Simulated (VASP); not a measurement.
# Bulk modulus and pressure derivative of A7-type antimony from stress and from energy at PBEsol, with cell shape and fractional positions held

A model of stress in an antimony film, as used in phase-change memories or thermoelectric stacks, needs, among other elastic constants, a bulk modulus B0, and under larger loads its pressure derivative B0′. It has to be decided which of two routes supplies them, and how many digits to pass on. The problem is to obtain both constants for A7-type Sb at PBEsol, once from the pressure given by the stress tensor and once from the energy per atom above the lowest point. Both are followed against Eulerian strain, counted from the fitted volume V0 and positive in compression. The pressure at one moderately compressed volume is then to be predicted from the other pressures and the constants fitted to the energies.

## Set-up

One crystal, Sb (A7-type) (known phase), at PBEsol: single-point runs on uniformly scaled copies of a cell relaxed at PBEsol; symmetry leaves the fractional positions and the cell shape free, held here. Program: VASP 6.6.1, plane waves and PAW (data sets made for PBE of release 64), scalar-relativistic without spin-orbit coupling, no spin polarisation. Cutoff 400 eV; on the k meshes the divisions times the cell-vector length are 26 Å or more. Occupations: Gaussian smearing of 0.05 eV.

Notes on method and selection:

- Third-order Birch-Murnaghan: P = 3·B0·f·(1 + 2f)^(5/2)·[1 + (3/2)(B0′ − 4)·f]. The fit to the energies of these runs gives B0 = 57.2 GPa and B0′ = 4.00.
- Static lattice. The pressure from the stress tensor and the slope of the energy need not agree exactly at a finite cutoff and mesh.
- With the fractional positions and the cell shape held the modulus is an upper bound.
- A measured value is attached only where its sources agree among themselves; tables made before the last selection also left out values far from the computed one, as likely another phase or mode.
- Series whose points a third-order Birch-Murnaghan form does not fit, or whose B0′ lies outside 2 to 8, were left out.
- Crystals whose pressure at the fitted V0 departs from zero by more than 0.6 % of B0 plus 0.1 GPa, and layered compounds, were left out.
- Runs that did not converge, have known faults or may not be shown are not listed, and runs on Ansatz's PAW sets soft_1 and soft_2 are kept to separate tables.

Columns:

- Eulerian strain: Eulerian strain f = ½[(V0/V)^(2/3) − 1] with the fitted V0 = 30.1971 Å³ per atom, compression positive.
- fitted bulk modulus (GPa): bulk modulus at that volume from the third-order Birch-Murnaghan fit to the energies.
- volume (Å³): volume per atom.
- pressure (GPa): pressure from the stress tensor, compression positive.
- energy (meV/atom): energy per atom above the lowest point, extrapolated to zero smearing.

## Results

| member | Eulerian strain | fitted bulk modulus (GPa) | volume (Å³) | pressure (GPa) | energy (meV/atom) |
| --- | --- | --- | --- | --- | --- |
| V = 32.032 Å³ | −0.01928 | 44.8 | 32.0323 | −3.02 | 18.00 |
| V = 31.428 Å³ | −0.01314 | 48.6 | 31.4279 | −2.13 | 8.28 |
| V = 30.824 Å³ | −0.00680 | 52.6 | 30.8235 | −1.12 | 2.14 |
| V = 30.219 Å³ | −0.00024 | 57.0 | 30.2191 | −0.03 | 0.00 |
| V = 29.615 Å³ | 0.00653 | 61.8 | 29.6148 | ? | ? |
| V = 29.010 Å³ | 0.01354 | 66.9 | 29.0104 | 2.48 | 8.73 |
| V = 28.406 Å³ | 0.02080 | 72.5 | 28.4060 | 4.02 | 20.96 |

Cells marked ? are withheld until the estimate has been made.

Least-squares fits to the members shown, with x = Eulerian strain; R² and errors in the fitted variable (y, or ln y where the fit is in ln y):

| y | members | fit | R² | rms residual | leave-one-out rms | the same for the mean of the others |
| --- | --- | --- | --- | --- | --- | --- |
| pressure (GPa) | 6 | y = 0.002226 + 173.6 x + 891.4 x² | 1.00 | 0.019 | 0.049 | 3.0 |
| energy (meV/atom) | 6 | y = −0.08782 − 0.6597 x + 48590 x² | 1.00 | 0.053 | 0.12 | 9.2 |

## Interpretation

The pressure rises from −3.02 GPa in the most expanded cell to 4.02 GPa in the most compressed one, and it rises faster on the compressed side. Per unit strain it is 2.48 / 0.01354 = 183 GPa in compression and 2.13 / 0.01314 = 162 GPa in expansion. Shortened bonds meet a steeply growing repulsion between the electron shells, while stretched bonds weaken. In Eulerian strain nearly all of this asymmetry sits in the factor (1 + 2f)^(5/2), which arises when the slope of the energy in f is turned into a pressure; the energy itself is close to a parabola in f.

For small f the Birch-Murnaghan pressure is 3·B0·f·[1 + 5f + (3/2)(B0′ − 4)·f]. The quadratic fit to the pressures therefore gives B0 = 173.6 / 3 = 57.9 GPa and B0′ = 4 + (2/3) × (891.4 / 173.6 − 5) = 4.09.

The energy belonging to the same form is (9/2)·B0·V0·f² when B0′ = 4. Its fitted coefficient gives B0 = 2 × 48590 / (9 × 30.1971) = 357.6 meV/Å³. With 1 meV/Å³ = 0.1602 GPa this is 357.6 × 0.1602 = 57.3 GPa. The full third-order fit to the energies gives 57.2 GPa and 4.00. The two routes thus agree in B0 to about 1 %.

B0′ is less firmly fixed. Dividing each pressure by 3f(1 + 2f)^(5/2) should give a straight line in f whose slope is (3/2)·B0·(B0′ − 4). The outermost pair of volumes gives 3.02 / (3 × 0.01928 × (1 − 2 × 0.01928)^(5/2)) = 57.6 GPa and 4.02 / (3 × 0.02080 × (1 + 2 × 0.02080)^(5/2)) = 58.2 GPa, hence B0′ roughly 4.2. The next pair gives 2.13 / (3 × 0.01314 × (1 − 2 × 0.01314)^(5/2)) = 57.8 GPa and 2.48 / (3 × 0.01354 × (1 + 2 × 0.01354)^(5/2)) = 57.1 GPa, hence B0′ roughly 3.7. A value of 4 with an uncertainty of a few tenths is what these pressures support.

For the film model, 57 to 58 GPa is an upper bound for this level. In a real crystal under pressure the two atoms of the cell would shift along the trigonal axis and the axial ratio would adjust, and both motions lower the energy of a strained cell and soften the response.

## An estimate before looking

Plain estimates from the members shown:

- V = 29.615 Å³, fit at x = 0.00653: 1.17 GPa
- V = 29.615 Å³, straight-line interpolation between V = 30.219 Å³ and V = 29.010 Å³: w = (0.00653 − (−0.00024)) / (0.01354 − (−0.00024)) = 0.491, so −0.03 + 0.491 × (2.48 − (−0.03)) = 1.20 GPa

The straight line between the neighbouring volumes gives 1.20 GPa, which is too high because the pressure curve bends upward and a chord lies above it. The excess is the quadratic coefficient of the fit times the strain distances to the two neighbours, 891.4 × 0.00677 × 0.00701 = 0.04 GPa.

The route chosen is the Birch-Murnaghan form with the constants from the energies, B0 = 57.2 GPa and B0′ = 4.00, for which the last bracket equals one. At f = 0.00653 it gives

P = 3 × 57.2 × 0.00653 × (1 + 2 × 0.00653)^(5/2) = 1.16 GPa.

The same formula can be tried on all six shown pressures. At five of them it misses by about 0.02 GPa or less. In the most compressed cell it gives 3 × 57.2 × 0.02080 × (1 + 2 × 0.02080)^(5/2) = 3.95 GPa against 4.02 GPa in the table, a miss of 0.07 GPa. The root-mean-square miss is 0.03 GPa, and most of it comes from that cell.

No further shift is applied. The crystal, the level and the held coordinates are the same in every row, and the strain lies well inside the range covered. The quadratic fit to the pressures, at 1.17 GPa, falls within the error bar, which is taken from the scatter of the chosen formula.

**Committed estimate, V = 29.615 Å³: pressure = 1.16 ± 0.03 GPa.**

## Outcome

| member | Eulerian strain | fitted bulk modulus (GPa) | volume (Å³) | pressure (GPa) | energy (meV/atom) |
| --- | --- | --- | --- | --- | --- |
| V = 29.615 Å³ | 0.00653 | 61.8 | 29.6148 | 1.14 | 2.06 |

| member | estimate | pressure (GPa) | computed | estimate − computed | miss in error bars |
| --- | --- | --- | --- | --- | --- |
| V = 29.615 Å³ | committed | 1.16 | 1.14 | +0.02 | 0.7 |
| V = 29.615 Å³ | fit | 1.17 | 1.14 | +0.03 |  |
| V = 29.615 Å³ | interpolation | 1.20 | 1.14 | +0.06 |  |

pressure (GPa) against Eulerian strain:

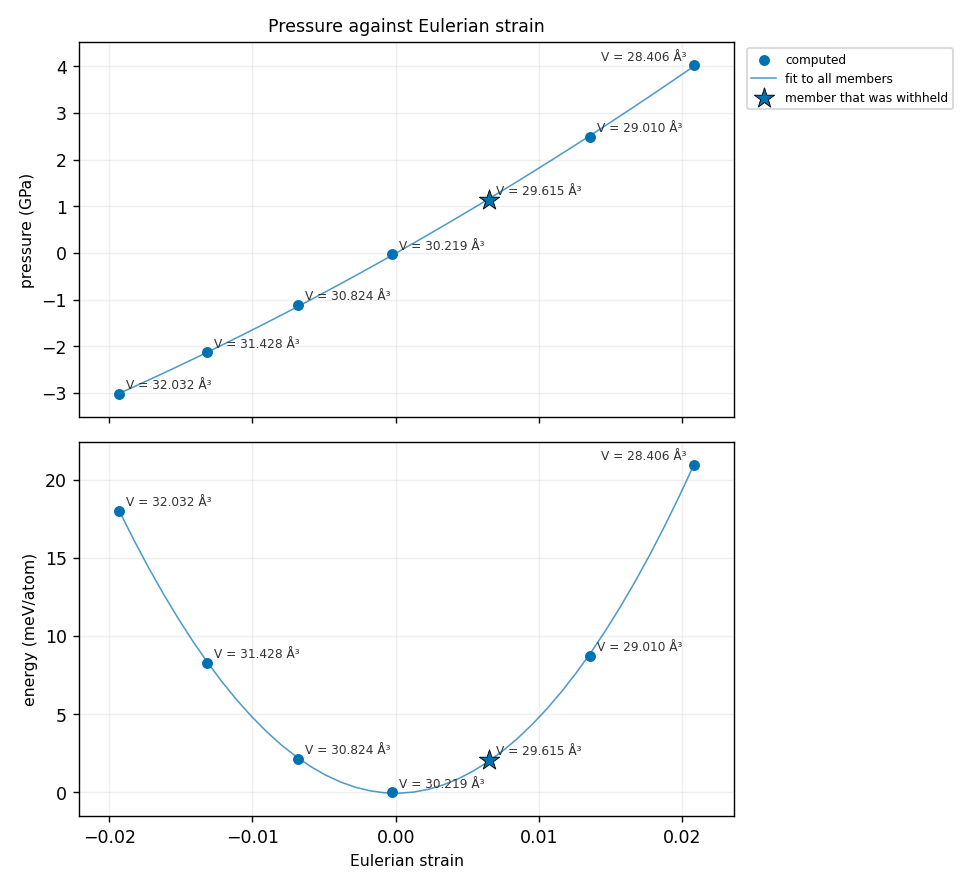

The estimate of 1.16 GPa lies 0.02 GPa above the computed 1.14 GPa, inside its error bar of 0.03 GPa. It came closer than the straight line between the neighbours (1.20 GPa), but its lead over the quadratic fit (1.17 GPa) is only 0.01 GPa and means nothing.

The argument about the chord held in sign. The straight line was expected to be 0.04 GPa too high and was 0.06 GPa too high, a difference within the scatter of the pressures. The stiffening on compression shows directly in the new point: the pressure rises by 1.17 / 0.00677 = 173 GPa per unit strain up to this volume and by 1.34 / 0.00701 = 191 GPa from there to the next.

The constants behind the estimate were fitted to the energies of the whole series, this volume included. The result is therefore a check that stress and energy agree, and less a test of how well the equation of state predicts an unseen volume.

## Exceptions

Least-squares fits to the whole series, with x = Eulerian strain; R² and errors in the fitted variable (y, or ln y where the fit is in ln y):

| y | members | fit | R² | rms residual | leave-one-out rms | the same for the mean of the others |
| --- | --- | --- | --- | --- | --- | --- |
| pressure (GPa) | 7 | y = −0.007833 + 173.4 x + 920.8 x² | 1.00 | 0.021 | 0.050 | 2.7 |
| energy (meV/atom) | 7 | y = −0.06410 − 0.1562 x + 48520 x² | 1.00 | 0.055 | 0.10 | 8.8 |

Largest departures from the fit to the whole series:

| member | pressure (GPa) | fit | computed − fit | in rms residuals |
| --- | --- | --- | --- | --- |
| V = 29.010 Å³ | 2.48 | 2.51 | −0.03 | 1.4 |
| V = 30.824 Å³ | −1.12 | −1.14 | +0.02 | 1.2 |
| V = 29.615 Å³ | 1.14 | 1.16 | −0.02 | 1.1 |
| V = 28.406 Å³ | 4.02 | 4.00 | +0.02 | 1.1 |

No volume stands out. The largest departure from the quadratic fit is −0.03 GPa at 29.010 Å³, or 1.4 rms residuals, and the next three are 0.02 GPa in size with both signs among them. Differences this small can plausibly come from the finite cutoff and k mesh, and they call for no physical cause.

## Against measurement

| member | quantity | measured | computed | computed − measured | conditions | source |
| --- | --- | --- | --- | --- | --- | --- |
| V = 30.219 Å³ | fitted bulk modulus (GPa) | 39.7 | 57.0 | +17.3 (+43.6 %) | 298 K; B0 with B0' fixed at 4; equation-of-state fit with the pressure derivative fixed at 4; high-pressure X-ray diffraction | [1] |

Sources:

[1] "Effect of pressure on the Raman modes of antimony" (2006, arXiv:cond-mat/0608676)

The computed modulus of 57.0 GPa is 17.3 GPa, or 43.6 %, above the 39.7 GPa measured by high-pressure X-ray diffraction at 298 K. Both numbers go with a pressure derivative of 4, so a different B0′ in the two fits doesn't explain the gap.

The held coordinates are the likeliest main cause. In the experiment the two atoms of the cell can shift along the trigonal axis as the crystal is compressed, and the axial ratio can change. In an A7 crystal the internal shift follows a soft vibration and may lower the modulus by roughly tens of per cent, which is the size needed here. Thermal expansion and lattice vibrations act in the same direction, by roughly a few per cent. The comparison is therefore no measure of the error of PBEsol itself.

The measured number has a weakness of its own. Its derivative was imposed, and if the real one is larger than 4, the fit has returned too high a B0 and the gap is wider still. For the same reason the experiment offers no check on the computed B0′.

## Closing remarks

Pressure and energy give the same B0 to about 1 %: 173.4 / 3 = 57.8 GPa from the stresses of all seven volumes and 57.2 GPa from the energies. B0′ is looser. The quadratic fit to the pressures gave 4.09 with six volumes and gives 4 + (2/3) × (920.8 / 173.4 − 5) = 4.21 with seven, against 4.00 from the energies. Between −3 and 4 GPa the Birch-Murnaghan form with the constants from the energies reproduces the pressures to about 0.03 GPa root mean square, with a larger miss of 0.07 GPa at the most compressed volume.

For the film model the choice of route hardly matters, while the held coordinates do. Reducing the volume by 1 % takes about 0.01 × 57.2 = 0.57 GPa in the held crystal, but 0.01 × 39.7 = 0.40 GPa with the measured modulus. The model should use the measured B0, or one computed with positions and cell shape relaxed at each volume, and two digits are enough. For B0′ these runs support one digit, 4, and only for the held crystal.
